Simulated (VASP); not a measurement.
# Pressure and energy of fcc Rh against volume, from −6.4 to 5.5 %, with PBEsol

The usual rule of thumb for a slightly strained metal is that pressure grows in proportion to the volume change and energy as its square, with one bulk modulus for compression and expansion. We test it on fcc Rh. The answer matters wherever Rh sits under stress, as in films, electrodes and coatings, and wherever an elastic constant is carried into a device model. Seven evenly scaled cells were calculated with PBEsol for a static lattice. Volume change is counted from the minimum of the Birch-Murnaghan fit, 13.50 Å³ per atom. Pressure is positive in compression, and energy is counted from the lowest calculated point, the cell at 13.44 Å³.

## How the numbers were made

A cell from a diffraction database, relaxed at this level and then scaled evenly, fractional positions kept. VASP 6.6.1, plane waves with PAW, PBEsol, cutoff 400 eV, k mesh 10×10×10, no spin polarisation, no spin-orbit coupling, static lattice. A Birch-Murnaghan fit to the energies has its minimum at 13.50 Å³ per atom.

Notes on method and selection:

- The pressure is that of a finite plane-wave basis, so it need not vanish exactly at the minimum of the energy.
- Only series whose fit has its minimum inside the range and an error under 0.5 meV per atom are shown.
- Where rows or columns differ in functional or spin-orbit coupling, non-spherical gradient terms in the PAW spheres (LASPH) may be on in some and off in others.
- Runs that did not converge, have known faults or may not be shown are not listed, and runs on Ansatz's PAW sets soft_1 and soft_2 are kept to separate tables.

Columns:

- volume change (%): volume relative to the fitted equilibrium volume.
- pressure (GPa): pressure from the stress tensor (positive: compressed).
- energy (meV/atom): energy per atom above the lowest point of the series.

Input lines of one member:

```
PREC = Accurate
ENCUT = 400
EDIFF = 1E-06
NELM = 100
ISMEAR = 1
SIGMA = 0.2
LREAL = .FALSE.
ALGO = Normal
GGA = PS
NBANDS = 13
LORBIT = 11
KPAR = 2
ISIF = 2
```

Command (options for logging and memory left out): `mpirun -np 2 vasp_std`

## Results

| member | volume change (%) | pressure (GPa) | energy (meV/atom) |
| --- | --- | --- | --- |
| 12.63 Å³ | −6.43 | 21.82 | 58.9 |
| 12.90 Å³ | −4.43 | 13.64 | 26.9 |
| 13.17 Å³ | −2.44 | 6.40 | 7.7 |
| 13.44 Å³ | −0.45 | 0.00 | 0.0 |
| 13.71 Å³ | 1.54 | −5.69 | 2.8 |
| 13.98 Å³ | 3.53 | −10.69 | 14.4 |
| 14.25 Å³ | 5.52 | −15.13 | 34.1 |

pressure (GPa) against volume change (%):

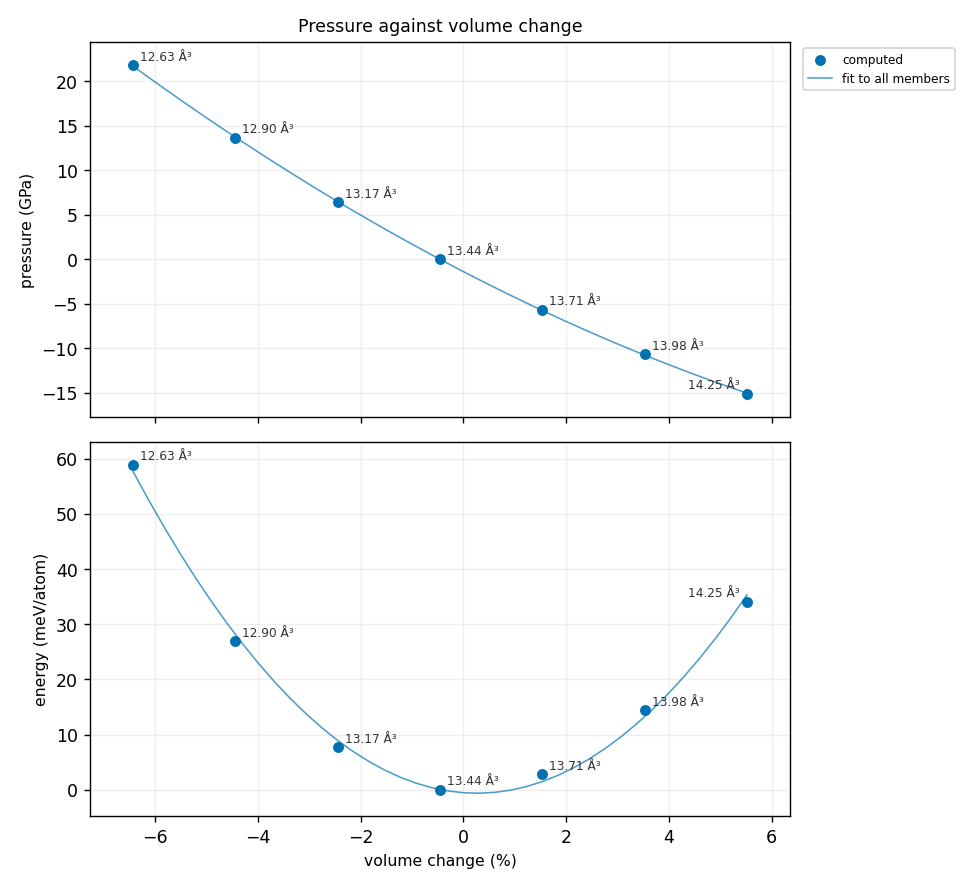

Least-squares fits to the whole series, with x = volume change (%); R² and errors in the fitted variable (y, or ln y where the fit is in ln y):

| y | members | fit | R² | rms residual | leave-one-out rms | the same for the mean of the others |
| --- | --- | --- | --- | --- | --- | --- |
| pressure (GPa) | 7 | y = −1.375 − 2.993 x + 0.09353 x² | 1.00 | 0.075 | 0.20 | 14 |
| energy (meV/atom) | 7 | y = −0.5171 − 0.6920 x + 1.301 x² | 1.00 | 1.1 | 3.0 | 23 |

## Why the values move as they do

Pressure falls at every step from the smallest cell to the largest, but by less each time. Between the two most compressed cells the slope is (13.64 − 21.82) / 2.00 = −4.09 GPa per % of volume. Between the two most expanded it is (−15.13 + 10.69) / 1.99 = −2.23 GPa per %. The proportional rule therefore gives the right sign and size, but its constant changes by a factor of 4.09 / 2.23 = 1.83 across the series.

The bulk modulus is $B = -V\,dP/dV$. At the fitted equilibrium the slope of the pressure fit gives 2.993 × 100 = 299 GPa, which marks Rh as a very stiff metal. At the midpoints of the two outermost intervals, the slope has to be multiplied by the relative volume $V/V_0$ there. This is 1 + (−6.43 − 4.43) / 200 = 0.946 in compression and 1 + (3.53 + 5.52) / 200 = 1.045 in expansion, which gives 4.09 × 100 × 0.946 = 387 GPa in compression and 2.23 × 100 × 1.045 = 233 GPa in expansion. The mean pressures of these intervals are (21.82 + 13.64) / 2 = 17.73 GPa and (−10.69 − 15.13) / 2 = −12.91 GPa, so $B$ rises by (387 − 233) / (17.73 + 12.91) = 5.0 GPa per GPa of pressure, an ordinary value for a metal.

The energy shows the same asymmetry. With constant $B$ it would follow $E = BV_0x^2/(2 \times 10^4 \times 0.16)$ in meV per atom, with $x$ in %, $B$ in GPa, $V_0$ in Å³ and 0.16 GPa per meV/Å³ as the unit factor. The divisor is 20000 × 0.16 = 3200, so the factor before $x^2$ is 299 × 13.50 / 3200 = 1.26 meV per %². It predicts 1.26 × 6.43² = 52 meV for the smallest cell, where the table has 58.9, and 1.26 × 5.52² = 38 meV for the largest, where the table has 34.1.

The standard picture of a transition metal accounts for the sign. Bonding through the partly filled d band pulls the atoms together, while the kinetic energy of the squeezed s and p electrons and the overlap of the ion cores push them apart. The repulsion varies more steeply with distance than the bonding does, so the metal stiffens when compressed and softens when stretched.

## Exceptions

No cell breaks the smooth course of either column. The quadratic fits miss in a regular pattern: for energy, the smallest cell lies 1.2 meV per atom above the fit, the next two lie below it, those at 13.71 and 13.98 Å³ lie above it, and the largest lies below it. That is the mark of a missing cubic term, not of a faulty run.

The real discrepancy is between the columns. The pressure is zero at 13.44 Å³, the relaxed cell, while the energy fit has its minimum at 13.50 Å³. Energy differences give a second pressure, $P = -\Delta E/\Delta V$. Neighbouring cells are 12.90 − 12.63 = 0.27 Å³ apart, so for the first interval this is 0.16 × (58.9 − 26.9) / 0.27 = 19.0 GPa, against a mean stress-tensor pressure of 17.73 GPa. In all six intervals the stress tensor reads lower, by 1.2 to 1.4 GPa.

A nearly constant offset of this sign is what a finite plane-wave basis would produce (Pulay stress). The stress is evaluated for a fixed set of plane waves, whereas at fixed cutoff a larger cell receives more of them. Compared with a fixed set, this lowers the energy of the larger cell slightly and moves the energy minimum outwards. All seven cells share one cutoff, so the series does not prove this cause or show that it accounts for the whole offset. The test would be a higher cutoff, which should shrink a Pulay offset.

## Applications

**Which volume corresponds to a pressure of 10 GPa?**
The stress tensor reads about 1.3 GPa too low against the energies, so the tabulated pressure to look for is 10 − 1.3 = 8.7 GPa. It lies between the cells at 12.90 Å³ (13.64 GPa) and 13.17 Å³ (6.40 GPa), which differ by 13.64 − 6.40 = 7.24 GPa. Linear interpolation gives 12.90 + 0.27 × (13.64 − 8.7) / 7.24 = 13.08 Å³ per atom. Without the correction the result would be 12.90 + 0.27 × (13.64 − 10) / 7.24 = 13.04 Å³.

**How far can a single bulk modulus be trusted?**
We keep only the constant and linear terms of the pressure fit. At −2.44 % they give −1.375 + 2.993 × 2.44 = 5.93 GPa against 6.40, a miss of 6.40 − 5.93 = 0.47 GPa. At −6.43 % they give −1.375 + 2.993 × 6.43 = 17.87 GPa against 21.82, which is 18 % too low. At 5.52 % they give −1.375 − 2.993 × 5.52 = −17.90 GPa against −15.13, which overstates the tension by 18 %. One constant serves for changes of about 2 %; at the ends of the series the curvature has to be included.

**Is relaxing the cell to zero stress enough to obtain the lattice constant?**
The two equilibrium volumes differ by 13.50 − 13.44 = 0.06 Å³, or 0.06 / 13.50 = 0.4 %. A length changes by a third of that, about 0.15 %. This is acceptable for a starting structure. For misfit strains of a few tenths of a per cent it is a sizeable share, and the energy fit at fixed cutoff is the better choice.

## Rules of thumb and their limits

Between −6.43 and 5.52 % in volume, Rh stiffens steadily under compression, and a quadratic in the volume change reproduces the pressure with a leave-one-out error of 0.20 GPa, against 14 GPa for the mean of the others. Slopes of the pressure column are hardly touched by the offset; absolute pressures should be raised by about 1.3 GPa to agree with the energies.

The lattice is static. Zero-point motion and heat add a positive pressure, so they would enlarge the equilibrium volume and lower the bulk modulus there. Leaving out spin polarisation should matter little, since bulk Rh is not magnetic. The functional matters more: PBE would generally give a larger cell and a softer metal than PBEsol. Measured values are not compared here. The series covers uniform scaling only, so a film clamped in its plane needs the separate elastic constants as well.

[Logs are printed without paths, hosts, clocks, repeated set-up lines and the standing remarks that a program may print on its own settings, such as how far it seeks lower states.]
